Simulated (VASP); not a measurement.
# SCF cycles and wall time of BAs (F-43m) with different electronic solvers and density mixing, PBE in VASP

Eight routes lead to the same insulating ground state of BAs, yet one takes 34 self-consistency cycles and others only 12. What makes the path long when the end point is the same?

The question matters as soon as a run is repeated many times. Suppose that a computing cluster is to be checked over its service life by 10,000 repeats of one small job, the single-point energy of this two-atom BAs cell. Three limits are chosen here: an energy shift of at most 0.01 meV/atom against the run with ALGO = Normal, at most 15 cycles per run, and at most 15 hours of wall time for the whole set on two MPI ranks. The quantities screened are the energy error, the cycle count and the wall time of one PBE run at fixed positions.

## Computational details

A cell from a diffraction database. VASP 6.6.1, plane waves with PAW, PBE, 2 atoms at fixed positions, no spin polarisation, no spin-orbit coupling. Held fixed: cutoff 420 eV, k mesh 7×7×7, ISMEAR = -1, SIGMA = 0.05 eV and 2 MPI ranks. Each row is named by the tags or value that set it apart; differences are taken from the run 'ALGO = Normal'. All ran on Intel(R) Xeon(R) Platinum 8259CL CPU @ 2.50GHz (Skylake/Cascade Lake), shared with other work, so times are rough.

Notes on method and selection:

- Runs that did not converge, have known faults or may not be shown are not listed, and runs on Ansatz's PAW sets soft_1 and soft_2 are kept to separate tables.

Columns:

- energy error (meV/atom): energy per atom extrapolated to zero smearing, less that of the reference (ALGO = Normal).
- cycles: SCF cycles.

Input lines of one member:

```
PREC = Accurate
ENCUT = 420
EDIFF = 1E-06
NELM = 100
ISMEAR = -1
SIGMA = 0.05
LREAL = .FALSE.
ALGO = Normal
GGA = PE
NBANDS = 10
LORBIT = 11
KPAR = 2
ISIF = 2
```

Command (options for logging and memory left out): `mpirun -np 2 vasp_std`

## Numbers

| member | energy error (meV/atom) | cycles | wall time (s) |
| --- | --- | --- | --- |
| IMIX = 1, AMIX = 0.2 | 0.001 | 34 | 5.60 |
| ALGO = Damped | 0.000 | 20 | 3.80 |
| ALGO = All | 0.000 | 13 | 3.40 |
| ALGO = VeryFast | 0.000 | 20 | 3.40 |
| ALGO = Fast | 0.000 | 13 | 3.00 |
| AMIX = 0.1, BMIX = 0.01 | 0.001 | 13 | 2.80 |
| ALGO = Normal | 0.000 | 12 | 2.60 |
| AMIX = 0.8 | 0.000 | 12 | 2.60 |

wall time (s) by member:

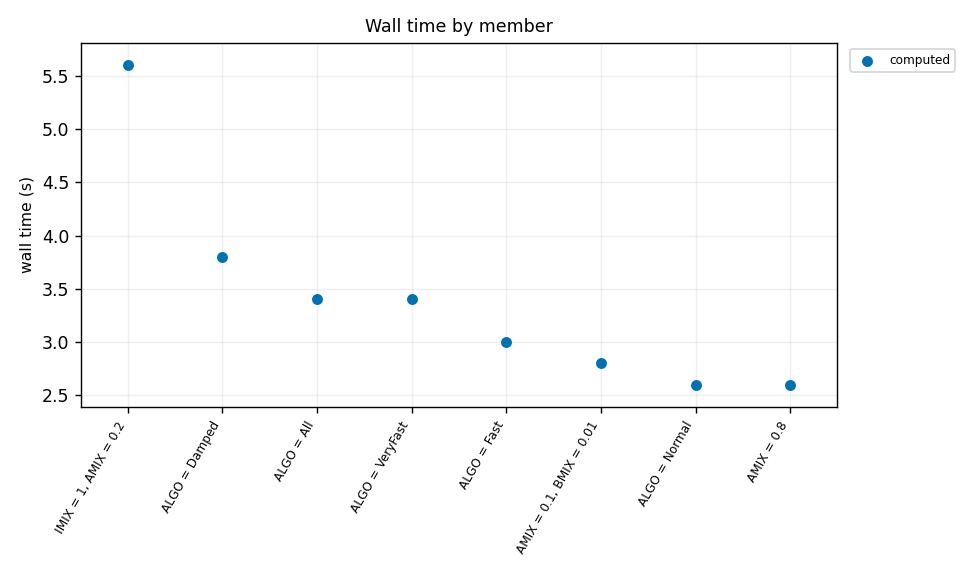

## Interpretation

The clearest effect comes from the mixing scheme. Replacing the default mixer by IMIX = 1 with AMIX = 0.2 raises the cycle count by a factor of 34 / 12 = 2.83 and the wall time by 5.60 / 2.60 = 2.15. The extra cost is (5.60 − 2.60) / (34 − 12) = 0.136 s per added cycle.

The reason lies in how the next input density is built. IMIX = 1 is Kerker mixing, which adds a fixed, damped fraction of the latest density residual and keeps no memory. A weakly screened component of the residual then shrinks by a factor of about 1 − 0.2 = 0.8 per cycle, so that ten cycles gain only about one decimal place. The default mixer combines the residuals of earlier cycles into an estimate of the dielectric response and corrects all components together. Its starting parameters therefore matter little: AMIX = 0.8 needs 12 cycles, and AMIX = 0.1 with BMIX = 0.01 needs 13. The material helps, because a gap and a small cell exclude the long-wavelength charge sloshing that makes mixing delicate in large metallic cells.

Among the solvers, Normal (blocked Davidson), Fast and All need 12 or 13 cycles, while VeryFast and Damped need 20. Their wall times, from 2.60 to 3.80 s, differ by less than a factor of two and give no firm ranking on a shared host.

The cycle count alone does not fix the wall time either. All, Fast and the run with AMIX = 0.1 and BMIX = 0.01 each need 13 cycles, yet take 3.40, 3.00 and 2.80 s. Different work within a cycle and the load on the shared host can both contribute, and these single runs cannot separate them.

## Where the trend breaks

IMIX = 1 with AMIX = 0.2 stands apart in cycles, but its energy can be trusted: it lies 0.001 meV/atom from the reference, a difference at the level of the printed rounding. The run is slow, not wrong.

VeryFast needs 20 cycles where Fast needs 13. VeryFast relies on RMM-DIIS, which refines each orbital towards a nearby eigenstate and so depends on good starting orbitals; Fast prepares them with Davidson steps first. In less simple systems RMM-DIIS can miss a state, but here it reaches the same insulating solution as the other solvers.

Damped also needs 20 cycles, against 13 for All. Both minimise the energy directly, and a likely reason for the difference is that Damped moves with a preset step and friction, whereas All adjusts its step along each search direction.

## Choosing a member

The energy limit removes nothing, since the largest shift in the table is 0.001 meV/atom against the 0.01 allowed. The cycle limit of 15 removes three rows: IMIX = 1 with AMIX = 0.2 (34 cycles), Damped (20) and VeryFast (20).

For the remaining five, the wall time of the set is the number of runs, 10,000, times the time of one run in seconds, divided by the number of seconds in an hour:

- Normal and AMIX = 0.8: 10000 × 2.60 / 3600 = 7.2 h
- AMIX = 0.1, BMIX = 0.01: 10000 × 2.80 / 3600 = 7.8 h
- Fast: 10000 × 3.00 / 3600 = 8.3 h
- All: 10000 × 3.40 / 3600 = 9.4 h

All five fit into 15 hours. The first two do so with a margin of 15 / 7.2 = 2.1, which leaves room for a busy host. These figures assume that every repeat takes as long as the run in the table.

The error of PBE itself enters every energy, whichever solver is used. PBE tends to make bonds slightly too long and too soft, so vibrational frequencies computed with it tend to be somewhat low. A change of solver or mixing neither cures nor worsens this.

The pick is ALGO = Normal with default mixing. The runner-up, AMIX = 0.8, equals it in cycles and in wall time; the default is preferred only because it needs no extra tag and takes a more cautious first mixing step.

A change of system could overturn the pick. In cells with many more atoms, orthogonalising the orbitals takes a growing share of the time, and RMM-DIIS, which does less of it, can make Fast or VeryFast the better choice. In long metallic cells or slabs, stronger damping of the long-wavelength density changes may be needed, and the mixing parameters would then matter.

## What to take away

For this two-atom insulator at fixed positions, solver and mixing change the path and not the energy. A mixer with memory is worth keeping, while fine-tuning its parameters gains nothing visible.

Two effects left out here can lengthen the runs by more than the spread of the table. A shear strain lowers the symmetry and can multiply the number of distinct k points by up to roughly 9, with the computing time rising nearly in step. A hybrid functional adds exact exchange and typically raises the time by a factor of 10 or more.

[Logs are printed without paths, hosts, clocks, repeated set-up lines and the standing remarks that a program may print on its own settings, such as how far it seeks lower states.]
